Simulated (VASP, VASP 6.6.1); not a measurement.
# Lattice constants of TaAs from LDA, PBE and PBEsol, and their sensitivity to the k mesh

## Background

The reference is a synchrotron powder diffraction measurement at room temperature on powder from transport-grown TaAs crystals ("Comparative $^{181}$Ta-NQR Study of Weyl Monopnictides TaAs and TaP: Relevance of Weyl Fermion Excitations", 2023, arXiv:2307.16009). It gives a = 3.43752 Å, c = 11.6476 Å and a conventional-cell volume of 137.63 Å³. The same study has a cell at 80 K, smaller by about 0.12 % in a, 0.13 % in c and 0.36 % in volume. A single-crystal X-ray measurement at room temperature ("Mesoscopic superconductivity and high spin polarization coexisting at metallic point contacts on Weyl semimetal TaAs", 2017, PubMed Central 5234076) finds both axes about 0.19 % shorter than the powder values. TaAs crystals often carry stacking faults and deviate from ideal stoichiometry, so some spread between samples is no surprise.

| compared with | measured | source's wording or label | T (K) | method |
| --- | --- | --- | --- | --- |
| lattice constant a of the conventional cell (Å) | 3.43752 | – | room temperature | synchrotron powder XRD * |
| lattice constant a of the conventional cell (Å) | 3.43349 | – | 80 | synchrotron powder XRD |
| lattice constant c of the conventional cell (Å) | 11.6476 | 11.64762 A (c) | room temperature | synchrotron powder XRD * |
| lattice constant c of the conventional cell (Å) | 11.633 | 11.63299 A (c) | 80 | synchrotron powder XRD |
| volume of the conventional cell (Å³) | 137.63 | conventional tetragonal cell | room temperature | synchrotron powder XRD * |
| volume of the conventional cell (Å³) | 137.14 | conventional tetragonal cell | 80 | synchrotron powder XRD |
| lattice constant c of the conventional cell (Å) | 11.6252 ± 0.0006 | – | room temperature | single-crystal X-ray diffraction |
| lattice constant a of the conventional cell (Å) | 3.431 | – | room temperature | single-crystal X-ray diffraction |

Where a quantity has several values, deviations refer to the one marked *.

Conditions are those given with the value in the passage it was taken from; "not stated" means there, and the paper may say more elsewhere. The values are a selection: others may have been left out beforehand as unlike or outlying.

## Strategy

I want the cheapest level of theory that gives a and c of TaAs each within 0.5 % and the volume within 1.5 % of the room-temperature powder cell. These limits are wider than the thermal change between 80 K and room temperature and than the difference between the two room-temperature cells, yet narrow enough to expose the roughly one per cent errors in length that simple functionals often make. The volume limit is what two a axes and one c axis, each at its own limit with the same sign, would add up to.

The model is the perfect, nonmagnetic I4₁md crystal with four atoms in the cell. Cell and atoms are relaxed with the symmetry kept, from a computed structure stretched by 3 % in volume. The nuclei are static, so an exact functional should land slightly below the room-temperature cell, by a few tenths of a per cent in length at most.

I start with LDA and move to gradient-corrected functionals as the errors demand. The level that meets the target then gets a check of its mesh and cutoff before I judge it. Spin-orbit coupling is essential for the Weyl nodes, but I expect little effect on the cell.

System: TaAs; I4_1md (No. 109), 4 atoms in the cell; conventional a = 3.444, c = 11.736 A, a computed structure from Materials Project.

On the selection of runs and values: 10 further cited values are not listed: repeats, values quoted from earlier work, more than five for one quantity or six quantities, or quantities that fewer than three runs give.

## 1. LDA as the simplest level

LDA is the simplest functional and a four-atom cell costs little, so I begin there with a 450 eV cutoff and a 6×6×6 mesh. LDA usually binds too strongly; I expect both axes to come out short, by perhaps one per cent, which would miss the target.

**Run 1.** VASP 6.6.1: LDA; 450 eV, 6x6x6 k mesh; cell and atoms relaxed, relaxed twice, LASPH on.

Key lines of the input:
```
ALGO = Normal
EDIFF = 1E-06
EDIFFG = -0.006
ENCUT = 450
GGA = CA
IBRION = 2
ISIF = 3
ISMEAR = 0
LASPH = .TRUE.
NBANDS = 22
NELM = 100
NSW = 50
PREC = Accurate
SIGMA = 0.03
KPOINTS: Gamma, 6 6 6
PAW data sets: Ta_pv As (LDA 64)
```

Command:
```
mpirun -np 8 vasp_std
```

Selected lines of the output:
```
 reached required accuracy - stopping structural energy minimisation
  volume of cell :       67.19
```

Converged; 25 s on 8 cores of Intel Xeon 6975P-C (Granite Rapids), shared host.

| quantity | run 1 | measured | deviation |
| --- | --- | --- | --- |
| lattice constant a of the conventional cell (Å) | 3.407 | 3.43752 | −0.031 (−0.9 %) |
| lattice constant c of the conventional cell (Å) | 11.577 | 11.6476 | −0.070 (−0.6 %) |
| volume of the conventional cell (Å³) | 134.38 | 137.63 | −3.25 (−2.4 %) |
| space group at the end | I4_1md |  |  |
| pressure left at the end (GPa) | 0.0254 |  |  |

LDA misses all three limits. The axes are short by 0.9 % and 0.6 %, and the volume by 2.4 %, which is the overbinding I expected. Cooling doesn't account for it: even against the 80 K cell, a is still about 0.8 % too short.

## 2. Two gradient-corrected functionals

A gradient correction is the next step up and adds little work for a cell this small. I run PBE and PBEsol with the same cutoff and mesh, since they weight the gradient differently. PBE usually overshoots lattice constants, perhaps by about one per cent here, while PBEsol was built for solids and should fall between LDA and PBE. I expect PBEsol to meet the target and PBE to be at its edge or beyond.

**Run 2.** VASP 6.6.1: PBE; 450 eV, 6x6x6 k mesh; cell and atoms relaxed, relaxed twice, LASPH on.

Key lines of the input, as changed from run 1:
```diff
- GGA = CA
+ GGA = PE
- PAW data sets: Ta_pv As (LDA 64)
+ PAW data sets: Ta_pv As (PBE 64)
```

Selected lines of the output:
```
 reached required accuracy - stopping structural energy minimisation
  volume of cell :       70.59
```

Converged; wall time 20 s.

**Run 3.** VASP 6.6.1: PBEsol; 450 eV, 6x6x6 k mesh; cell and atoms relaxed, relaxed twice, LASPH on.

Key lines of the input, as changed from run 2:
```diff
- GGA = PE
+ GGA = PS
```

Selected lines of the output:
```
 reached required accuracy - stopping structural energy minimisation
  volume of cell :       68.40
     0.000000000 -3.428128248  0.000000000     0.000000000 -0.291704373  0.085908727
     1.714064124 -1.714064124 -5.820130498     0.000000000  0.000000000 -0.171817453
```

Converged; wall time 35 s.

| quantity | run 2 | run 3 | measured |
| --- | --- | --- | --- |
| lattice constant a of the conventional cell (Å) | 3.4620 | 3.4281 | 3.43752 |
| lattice constant c of the conventional cell (Å) | 11.779 | 11.640 | 11.6476 |
| volume of the conventional cell (Å³) | 141.18 | 136.80 | 137.63 |
| space group at the end | I4_1md | I4_1md |  |
| pressure left at the end (GPa) | 0.0418 | 0.0211 |  |

PBE overshoots: against the measured cell a is 0.7 % too long, c about 1.1 % and the volume 2.6 %, so it misses all three limits from the other side. PBEsol meets all three, with a short by 0.3 %, c by less than 0.1 % and the volume by 0.6 %. Both functionals fall where I expected them, and PBEsol needs no more than the same kind of short relaxation.

## 3. Mesh and cutoff for PBEsol

PBEsol is now the candidate, and its settings have to be checked before I judge it. I change one at a time: first the mesh to 10×10×10 at 450 eV, since a semimetal has small Fermi pockets that a coarse mesh may sample poorly, then the cutoff to 600 eV on the 6×6×6 mesh. To overturn the result, either change would have to shift a by more than 0.2 % downwards or c by more than 0.4 %; I expect much smaller shifts.

**Run 4.** VASP 6.6.1: PBEsol; 450 eV, 10x10x10 k mesh; cell and atoms relaxed, relaxed twice, LASPH on.

Key lines of the input, as changed from run 3:
```diff
- KPOINTS: Gamma, 6 6 6
+ KPOINTS: Gamma, 10 10 10
```

Selected lines of the output:
```
 reached required accuracy - stopping structural energy minimisation
     0.000000000 -3.431407425  0.000000000     0.000000000 -0.291425609  0.086152998
     1.715703712 -1.715703712 -5.803628557     0.000000000  0.000000000 -0.172305996
```

Converged; wall time 47 s.

**Run 5.** VASP 6.6.1: PBEsol; 600 eV, 6x6x6 k mesh; cell and atoms relaxed, relaxed twice, LASPH on.

Key lines of the input, as changed from run 3:
```diff
- ENCUT = 450
+ ENCUT = 600
```

Selected lines of the output:
```
   8 F= -.37703227E+02 E0= -.37703210E+02  d E =0.506126E-04
   9 F= -.37703335E+02 E0= -.37703317E+02  d E =-.567258E-04
  10 F= -.37703335E+02 E0= -.37703317E+02  d E =-.571908E-04
  11 F= -.37703340E+02 E0= -.37703323E+02  d E =-.512833E-05
[second pass]
   1 F= -.37703004E+02 E0= -.37702987E+02  d E =-.377030E+02
 reached required accuracy - stopping structural energy minimisation
  external PRESSURE =       0.2300845 kB  Pullay stress =       0.0000000 kB
  volume of cell :       68.41
      direct lattice vectors                 reciprocal lattice vectors
     0.000000000 -3.428268249  0.000000000     0.000000000 -0.291692460  0.085903841
    -3.428268249  0.000000000  0.000000000    -0.291692460  0.000000000 -0.085903841
     1.714134125 -1.714134125 -5.820461490     0.000000000  0.000000000 -0.171807683
```

Converged; wall time 40 s.

| quantity | run 4 | run 5 | measured |
| --- | --- | --- | --- |
| lattice constant a of the conventional cell (Å) | 3.4314 | 3.4283 | 3.43752 |
| lattice constant c of the conventional cell (Å) | 11.607 | 11.641 | 11.6476 |
| volume of the conventional cell (Å³) | 136.67 | 136.82 | 137.63 |
| space group at the end | I4_1md | I4_1md |  |
| pressure left at the end (GPa) | −0.0101 | 0.0230 |  |

The cutoff hardly matters: at 600 eV both axes stay within about 0.01 % of their values at 450 eV. The mesh matters more than I expected. Going to 10×10×10 lengthens a by 0.1 % and shortens c by 0.3 %, while the volume changes by only 0.1 %, so it is mainly the axial ratio that responds.

PBEsol still meets the target on the denser mesh, with a short by 0.2 %, c by 0.35 % and the volume by 0.7 %. The almost exact c on the coarser mesh was therefore partly a sampling error. These two meshes don't show how much of the shift in c would remain beyond 10×10×10.

## 4. Spin-orbit coupling as missing physics

Tantalum is heavy, and spin-orbit coupling rearranges the bands near the Fermi level, where the mesh has just proved to matter. On the denser mesh c could shrink by only about another 0.15 % (the 0.5 % limit less the 0.35 % shortfall) before it left the target, so I want to see the size of this effect. I add the coupling to PBEsol at 450 eV and 6×6×6 and compare with the scalar-relativistic run on that same mesh. I expect a shift of about 0.1 % or less.

**Run 6.** VASP 6.6.1: PBEsol with spin-orbit coupling; 450 eV, 6x6x6 k mesh; cell and atoms relaxed, relaxed twice, LASPH on.

Key lines of the input, as changed from run 3:
```diff
+ GGA_COMPAT = .FALSE.
- NBANDS = 22
+ LMAXMIX = 4
+ LNONCOLLINEAR = .TRUE.
+ LSORBIT = .TRUE.
+ MAGMOM = 0 0 0 0 0 0 0 0 0 0 0 0
+ NBANDS = 44
```

Command:
```
mpirun -np 8 vasp_ncl
```

Selected lines of the output:
```
 reached required accuracy - stopping structural energy minimisation
     0.000000000 -3.430900335  0.000000000     0.000000000 -0.291468682  0.085971691
     1.715450168 -1.715450168 -5.815867911     0.000000000  0.000000000 -0.171943382
```

Converged; wall time 3.2 min.

| quantity | run 6 | measured | deviation |
| --- | --- | --- | --- |
| lattice constant a of the conventional cell (Å) | 3.4309 | 3.43752 | −0.0066 (−0.2 %) |
| lattice constant c of the conventional cell (Å) | 11.632 | 11.6476 | −0.016 (−0.1 %) |
| volume of the conventional cell (Å³) | 136.92 | 137.63 | −0.71 (−0.5 %) |
| space group at the end | I4_1md |  |  |
| pressure left at the end (GPa) | 0.0076 |  |  |

With spin-orbit coupling a grows by 0.08 %, c shrinks by 0.07 % and the volume grows by 0.1 %. These shifts are as small as I expected. The input also changes GGA_COMPAT, LMAXMIX and the number of bands. The doubled bands are needed for spinors and LMAXMIX acts on the charge mixing, so these should matter little, though their separate effect is not shown in this report. The shifts are also taken on a mesh that is not converged in c, so their exact size is uncertain.

The shift in c is about half of the roughly 0.15 % that PBEsol has to spare on the 10×10×10 mesh. If it carried over to that mesh, c would still be within its limit, though closer to it; the two settings combined are not shown in this report. The run took 3.2 min against 35 s without the coupling, and the target doesn't call for that extra work. Scalar-relativistic PBEsol has met all three limits at each cutoff and mesh used here, so I end the series with it.

## Results at a glance

| run | settings | lattice constant a of the conventional cell (Å) | lattice constant c of the conventional cell (Å) | volume of the conventional cell (Å³) | cost |
| --- | --- | --- | --- | --- | --- |
| 1 | LDA, 450 eV, 6x6x6 k mesh | 3.407 | 11.577 | 134.38 | 3.3 core-min |
| 2 | PBE, 450 eV, 6x6x6 k mesh | 3.4620 | 11.779 | 141.18 | 2.6 core-min |
| 3 | PBEsol, 450 eV, 6x6x6 k mesh | 3.4281 | 11.640 | 136.80 | 4.7 core-min |
| 4 | PBEsol, 450 eV, 10x10x10 k mesh | 3.4314 | 11.607 | 136.67 | 6.3 core-min |
| 5 | PBEsol, 600 eV, 6x6x6 k mesh | 3.4283 | 11.641 | 136.82 | 5.3 core-min |
| 6 | PBEsol with spin-orbit coupling, 450 eV, 6x6x6 k mesh | 3.4309 | 11.632 | 136.92 | 26 core-min |
|  | measured | 3.43752 | 11.6476 | 137.63 |  |

The runs in order, against the measurement:

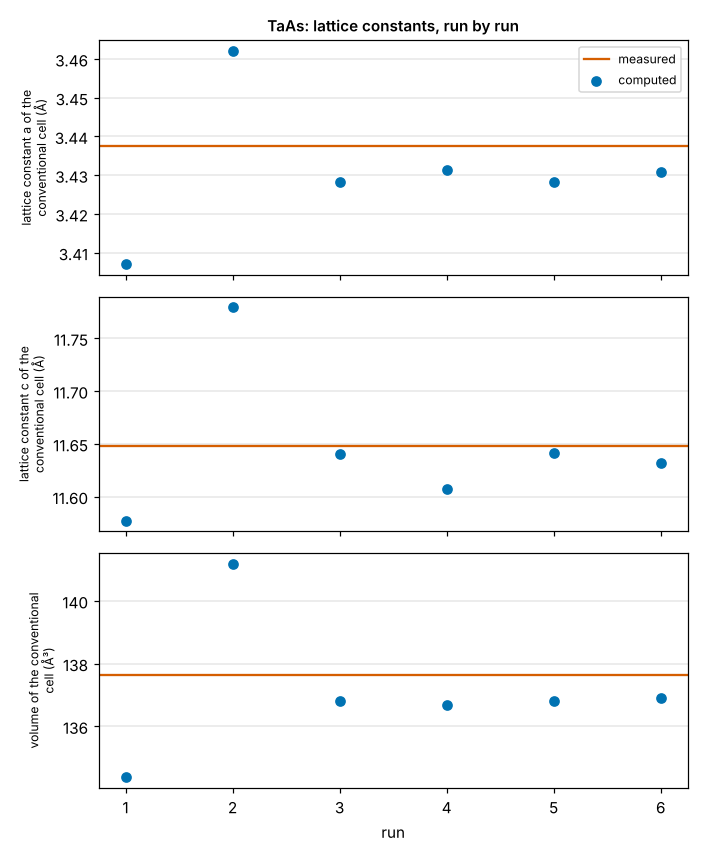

Further runs on the same system, made beside this series (convergence steps with loose settings among them):

| further | settings | lattice constant a of the conventional cell (Å) | lattice constant c of the conventional cell (Å) | volume of the conventional cell (Å³) | cost |
| --- | --- | --- | --- | --- | --- |
| F1 | r2SCAN + rVV10, 450 eV, 6x6x6 k mesh | 3.4380 | 11.720 | 138.54 | 31 core-min |
| F2 | HSE06, 450 eV, 4x4x4 k mesh | 3.4144 | 11.803 | 137.59 | 2.8 core-h |
| F3 | r2SCAN, 450 eV, 6x6x6 k mesh | 3.4422 | 11.753 | 139.26 | 8.5 core-min |
| F4 | rev-vdW-DF2, 450 eV, 6x6x6 k mesh | 3.4528 | 11.721 | 139.74 | 29 core-min |
| F5 | PBEsol + D3(BJ), 450 eV, 6x6x6 k mesh | 3.3988 | 11.488 | 132.71 | 4.4 core-min |
| F6 | PBE + D3(BJ), 450 eV, 6x6x6 k mesh | 3.4313 | 11.623 | 136.85 | 5 core-min |
| F7 | PBEsol, 220 eV, 6x6x6 k mesh | 3.4241 | 11.616 | 136.18 | 2.3 core-min |
| F8 | PBEsol, 450 eV, 4x4x4 k mesh | 3.4235 | 11.705 | 137.19 | 3.1 core-min |
|  | measured | 3.43752 | 11.6476 | 137.63 |  |

## How well does the simulation do?

PBEsol meets the target. On the 10×10×10 mesh a is 0.2 % short, c 0.35 % and the volume 0.7 %, for 6.3 core-minutes. LDA and PBE miss all three limits, from opposite sides.

The mesh check mattered most. From 4×4×4 through 6×6×6 to 10×10×10, c falls from 11.705 to 11.640 and 11.607 Å while the volume changes little. The near-exact c on the middle mesh was therefore partly a cancellation between the sampling error and the remaining shortfall. Whether c has settled at 10×10×10 remains open, and only about 0.15 % separates it from its limit. Raising the cutoff to 600 eV changed almost nothing, and spin-orbit coupling wasn't needed for this target.

All three remaining deviations are negative, as they should be for static nuclei compared with a room-temperature crystal. Against the 80 K cell they shrink to about 0.1 % in a, 0.2 % in c and 0.3 % in volume. Zero-point motion would probably remove a little more; the rest may lie in the functional, the mesh or the composition of the sample. The single-crystal cell, shorter on both axes, would also leave PBEsol within the target.

PBE + D3(BJ) also passes on the 6×6×6 mesh at similar cost, so PBEsol may not be the only inexpensive choice; its mesh dependence is not shown in this report. Adding D3(BJ) to PBEsol, however, makes the cell far too small. On the 6×6×6 mesh r2SCAN overshoots the limit in c, with or without rVV10; with rVV10 the excess is smaller than the shift that the mesh caused for PBEsol, so that miss is not firm. HSE06 gets the volume almost exactly right only because a short a offsets a long c; its 4×4×4 mesh is too coarse to judge the functional by.

[Logs are printed without paths, hosts, clocks, repeated set-up lines and the standing remarks that a program may print on its own settings, such as how far it seeks lower states.]

[The runs shown are a pick from a larger set of finished runs; failed, doubtful and other runs were left out of it ahead of writing. So were measured values far from every level or from commonly accepted values, and agreement can look better than it is. Lines of input and output are excerpts and may be shortened.]
